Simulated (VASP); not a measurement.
# Bulk modulus and pressure derivative of rocksalt CaO from stress and from energy at PBE+D3(BJ)

The decision to be served is whether the bulk modulus of CaO can be taken from the stress tensor of a few scaled cells, or whether a fit to their energies is needed. The two routes should agree, since pressure is minus the slope of energy against volume, but at a finite plane-wave cutoff they need not do so exactly. Seven volumes of the rocksalt cell, from 6 % below to 6 % above the relaxed one, supply both quantities at PBE+D3(BJ). Pressure is counted positive in compression, and energy is taken per atom above the lowest point. The two routes are compared with each other, and one bulk modulus is compared with a measured value at 300 K.

## Calculations

One crystal, CaO (rocksalt) (known phase), at PBE+D3(BJ): single-point runs on uniformly scaled copies of a cell relaxed at PBE+D3(BJ); symmetry fixes shape and positions. Program: VASP 6.6.1, plane waves and PAW (data sets made for PBE of release 64), scalar-relativistic without spin-orbit coupling, no spin polarisation. Cutoff 520 eV; on the k meshes the divisions times the cell-vector length are 26 Å or more. Occupations: Gaussian smearing of 0.05 eV.

Notes on method and selection:

- Third-order Birch-Murnaghan: P = 3·B0·f·(1 + 2f)^(5/2)·[1 + (3/2)(B0′ − 4)·f]. The fit to the energies of these runs gives B0 = 112.3 GPa and B0′ = 4.30.
- Static lattice. The pressure from the stress tensor and the slope of the energy need not agree exactly at a finite cutoff and mesh.
- D3(BJ) is an atom-based dispersion correction added to the functional.
- Semilocal functionals put Kohn-Sham gaps below measured gaps.
- A measured value is attached only where its sources agree among themselves; tables made before the last selection also left out values far from the computed one, as likely another phase or mode.
- Series whose points a third-order Birch-Murnaghan form does not fit, or whose B0′ lies outside 2 to 8, were left out.
- Crystals whose pressure at the fitted V0 departs from zero by more than 0.6 % of B0 plus 0.1 GPa, and layered compounds, were left out.
- Runs that did not converge, have known faults or may not be shown are not listed, and runs on Ansatz's PAW sets soft_1 and soft_2 are kept to separate tables.

Columns:

- Eulerian strain: Eulerian strain f = ½[(V0/V)^(2/3) − 1] with the fitted V0 = 13.7784 Å³ per atom, compression positive.
- fitted bulk modulus (GPa): bulk modulus at that volume from the third-order Birch-Murnaghan fit to the energies.
- volume (Å³): volume per atom.
- pressure (GPa): pressure from the stress tensor, compression positive.
- energy (meV/atom): energy per atom above the lowest point, extrapolated to zero smearing.
- gap (eV): Kohn-Sham gap on the k mesh.

## The series

| member | Eulerian strain | fitted bulk modulus (GPa) | volume (Å³) | pressure (GPa) | energy (meV/atom) | gap (eV) |
| --- | --- | --- | --- | --- | --- | --- |
| V = 14.583 Å³ | −0.01855 | 87.3 | 14.5825 | −5.77 | 14.87 | 3.644 |
| V = 14.307 Å³ | −0.01240 | 95.2 | 14.3074 | −4.05 | 6.66 | 3.642 |
| V = 14.032 Å³ | −0.00605 | 103.7 | 14.0322 | −2.13 | 1.58 | 3.638 |
| V = 13.757 Å³ | 0.00052 | 113.0 | 13.7571 | 0.00 | 0.00 | 3.633 |
| V = 13.482 Å³ | 0.00730 | 123.2 | 13.4819 | 2.38 | 2.32 | 3.625 |
| V = 13.207 Å³ | 0.01432 | 134.2 | 13.2068 | 5.03 | 8.95 | 3.614 |
| V = 12.932 Å³ | 0.02159 | 146.3 | 12.9317 | 7.98 | 20.38 | 3.601 |

pressure (GPa) against Eulerian strain:

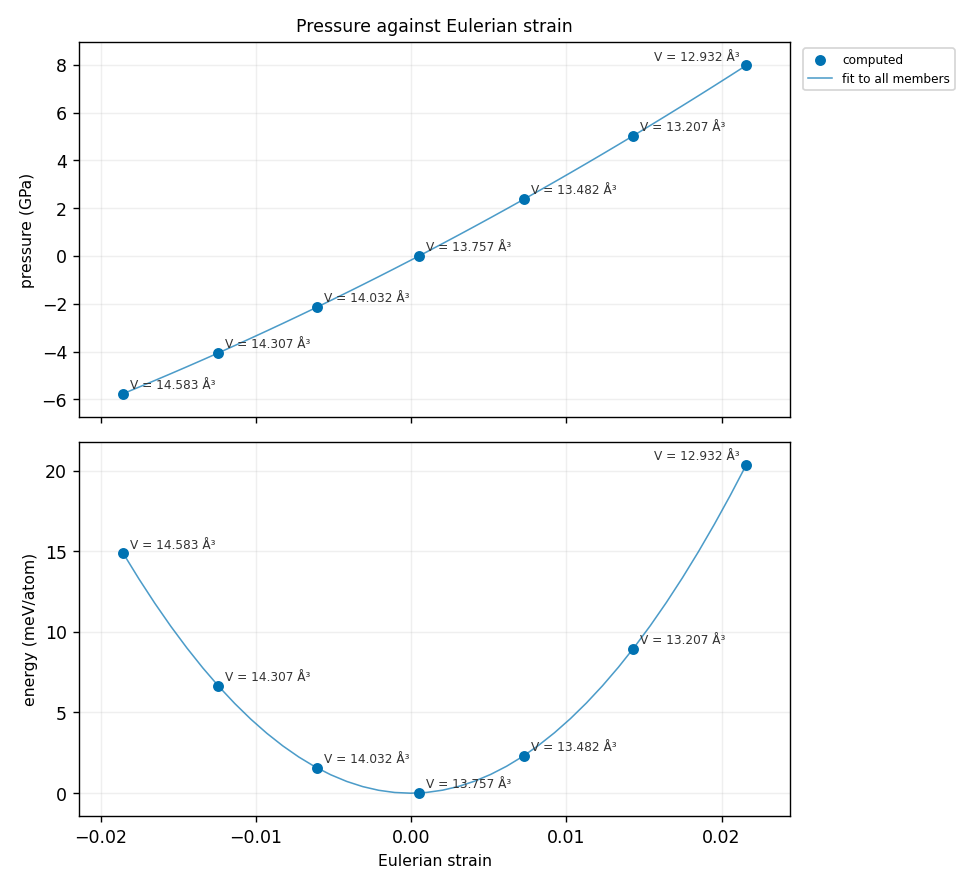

Least-squares fits to the whole series, with x = Eulerian strain; R² and errors in the fitted variable (y, or ln y where the fit is in ln y):

| y | members | fit | R² | rms residual | leave-one-out rms | the same for the mean of the others |
| --- | --- | --- | --- | --- | --- | --- |
| pressure (GPa) | 7 | y = −0.17252 + 336.53 x + 1892.3 x² | 1.00 | 0.0056 | 0.014 | 5.3 |
| energy (meV/atom) | 7 | y = −0.010376 + 3.8695 x + 43524 x² | 1.00 | 0.020 | 0.054 | 8.1 |

## Mechanism

The fit to the energies gives a bulk modulus of 112.3 GPa and a pressure derivative of 4.30; the values from the stress tensor are derived in the next section. From the most expanded to the most compressed cell the fitted modulus rises from 87.3 to 146.3 GPa.

The model rests on three assumptions: the lattice is static, the cell changes only in scale, and the energy is a series in Eulerian strain that ends at the cubic term. Symmetry guarantees the second. With g = ½[(Vr/V)^(2/3) − 1], where Vr is the volume at zero pressure, the series is

E = E0 + a·g² + b·g³.

The strain changes with volume as dg/dV = −(1 + 2g)^(5/2)/(3Vr). Hence

P = −dE/dV = (1 + 2g)^(5/2)·(2a·g + 3b·g²)/(3Vr).

Requiring that the modulus and its pressure derivative at g = 0 be B and B′ gives a = (9/2)·B·Vr and b = a·(B′ − 4). The result is the third-order Birch-Murnaghan form,

P = 3B·g·(1 + 2g)^(5/2)·[1 + (3/2)(B′ − 4)·g].

A value of B′ near 4 therefore means that the energy is almost a parabola in Eulerian strain. Most of the stiffening is already contained in that parabola. For B′ = 4 the modulus is B·(1 + 2g)^(5/2)·(1 + 7g). For the smallest cell the tabulated strain gives (1 + 2 × 0.02159)^(5/2) = 1.1115 and 1 + 7 × 0.02159 = 1.1511. With the energy-fit modulus this makes 112.3 × 1.1115 × 1.1511 = 143.7 GPa, against 146.3 GPa from the full fit.

Physically, the overlap repulsion between neighbouring ions grows faster on compression than their electrostatic attraction, so each further step costs more pressure. The Kohn-Sham gap stays between 3.601 and 3.644 eV at the seven volumes, so no change of band filling disturbs the curve.

## Fixing and testing the model

The reference is the cell with zero stress, Vr = 13.7571 Å³. The two constants are fixed on the smallest and the largest cell:

- V = 12.932 Å³: g = 0.5 × ((13.7571 / 12.9317)^(2/3) − 1) = 0.02106 and (1 + 2 × 0.02106)^(5/2) = 1.1086
- V = 14.583 Å³: g = 0.5 × ((13.7571 / 14.5825)^(2/3) − 1) = −0.01905 and (1 − 2 × 0.01905)^(5/2) = 0.9075
 Dividing each pressure by 3g·(1 + 2g)^(5/2) leaves a quantity that is linear in g:

- V = 12.932 Å³: 7.98 / (3 × 0.02106 × 1.1086) = 113.93 GPa
- V = 14.583 Å³: 5.77 / (3 × 0.01905 × 0.9075) = 111.25 GPa

The slope is (113.93 − 111.25) / (0.02106 + 0.01905) = 66.8 GPa. It follows that

- B = 111.25 + 66.8 × 0.01905 = 112.5 GPa
- B′ = 4 + 66.8 / (1.5 × 112.5) = 4.40

The rounding of the two pressures alone leaves about 0.03 of uncertainty in B′. With 3B = 3 × 112.5 = 337.5 GPa and (3/2)(B′ − 4) = 1.5 × 0.40 = 0.60, the other strained cells follow:

- V = 14.307 Å³: g = 0.5 × ((13.7571 / 14.3074)^(2/3) − 1) = −0.01290, (1 − 2 × 0.01290)^(5/2) = 0.9367 and 1 − 0.60 × 0.01290 = 0.9923, so P is 337.5 × (−0.01290) × 0.9367 × 0.9923 = −4.05 GPa; table −4.05
- V = 14.032 Å³: g = 0.5 × ((13.7571 / 14.0322)^(2/3) − 1) = −0.00656, (1 − 2 × 0.00656)^(5/2) = 0.9675 and 1 − 0.60 × 0.00656 = 0.9961, so P is 337.5 × (−0.00656) × 0.9675 × 0.9961 = −2.13 GPa; table −2.13
- V = 13.482 Å³: g = 0.5 × ((13.7571 / 13.4819)^(2/3) − 1) = 0.00678, (1 + 2 × 0.00678)^(5/2) = 1.0342 and 1 + 0.60 × 0.00678 = 1.0041, so P is 337.5 × 0.00678 × 1.0342 × 1.0041 = 2.38 GPa; table 2.38
- V = 13.207 Å³: g = 0.5 × ((13.7571 / 13.2068)^(2/3) − 1) = 0.01379, (1 + 2 × 0.01379)^(5/2) = 1.0704 and 1 + 0.60 × 0.01379 = 1.0083, so P is 337.5 × 0.01379 × 1.0704 × 1.0083 = 5.02 GPa; table 5.03

The energies give the modulus from their curvature. The quadratic coefficient in the table of fits is close to (9/2)·B0·V0, and 1 GPa Å³ is 6.2415 meV, so B0 = 43524 / (4.5 × 13.7784 × 6.2415) = 112.5 GPa. The full third-order fit, which also keeps the cubic term, gives 112.3 GPa and B0′ = 4.30. At the volume of zero stress the same fit gives 113.0 GPa, 0.5 GPa above the stress route.

## Departures from the trend

Largest departures from the fit to the whole series:

| member | pressure (GPa) | fit | computed − fit | in rms residuals |
| --- | --- | --- | --- | --- |
| V = 14.032 Å³ | −2.13 | −2.14 | +0.01 | 1.7 |
| V = 14.583 Å³ | −5.77 | −5.76 | −0.01 | 1.1 |
| V = 13.482 Å³ | 2.38 | 2.38 | 0.00 | 0.9 |
| V = 12.932 Å³ | 7.98 | 7.98 | 0.00 | 0.9 |

The pressures by themselves follow the model to about 0.01 GPa. What fails is the assumption that the stress tensor equals the slope of the energy. With B0 = 112.3 GPa, B0′ = 4.30 and the tabulated strains, the energy fit gives these pressures:

- V = 12.932 Å³: (1 + 2 × 0.02159)^(5/2) = 1.1115 and 1 + 1.5 × 0.30 × 0.02159 = 1.0097, so P is 3 × 112.3 × 0.02159 × 1.1115 × 1.0097 = 8.16 GPa
- V = 14.583 Å³: (1 − 2 × 0.01855)^(5/2) = 0.9098 and 1 − 1.5 × 0.30 × 0.01855 = 0.9917, so P is 3 × 112.3 × (−0.01855) × 0.9098 × 0.9917 = −5.64 GPa
 The stress tensor gives 7.98 and −5.77 GPa, which is lower by 0.18 and 0.13 GPa.

The sign is that of Pulay stress. The stress tensor is the derivative at a fixed set of plane waves, whose effective cutoff falls as the cell expands. Runs at fixed cutoff instead add plane waves to a larger cell, which keeps its energy lower, so the energy slope gives the higher pressure. This cause is inferred from the sign; the table holds no second cutoff to test it. Accordingly the energy minimum lies at 13.7784 Å³, about 0.15 % above the volume of zero stress.

A missing pressure that scales as 1/V would grow by only about 0.02 GPa along the series, less than the 0.05 GPa found. Uneven steps in the number of plane waves may contribute the rest.

## Against measurement

| member | quantity | measured | computed | computed − measured | conditions | source |
| --- | --- | --- | --- | --- | --- | --- |
| V = 13.757 Å³ | fitted bulk modulus (GPa) | 113 | 113.0 | 0.0 (+0.0 %) | 300 K; measured value as tabulated in the cited paper | [1] |

Sources:

[1] "High-Throughput Prediction of Finite-Temperature Properties using the Quasi-Harmonic Approximation" (2016, arXiv:1603.06924)

The measured bulk modulus is 113 GPa at 300 K. The computed 113.0 GPa belongs to the volume of zero stress; at the minimum of the energy fit the value is 112.3 GPa, or 0.7 GPa lower. Both agree with the measurement to within 1 %.

This agreement is closer than the physics included would justify. The computed lattice is static, and thermal softening would bring its modulus below the measured one, so an error of the functional with the opposite sign may be hidden in the match. The measured figure is also a compiled one without a stated method. Adiabatic and isothermal moduli of such an oxide differ by roughly 1 to 2 GPa at room temperature, which is more than the difference found here.

Values far from the computed one were left out in an earlier selection, which favours agreement. With one measured modulus and no measured pressure derivative in the table, the stiffening under pressure is not compared here.

## Conclusions and limits

Between −5.77 and 7.98 GPa either route serves for the bulk modulus of CaO, since they differ by about 0.5 GPa in B and 0.1 in B′. For the equilibrium volume at this cutoff the energy fit is preferable, because it is free of the stress offset.

Two effects outside this comparison are larger than the difference between the routes. Zero-point and thermal motion expand the lattice and lower the modulus, by roughly 5 GPa at room temperature. The choice of functional and dispersion correction typically shifts the modulus of such an oxide by several per cent.
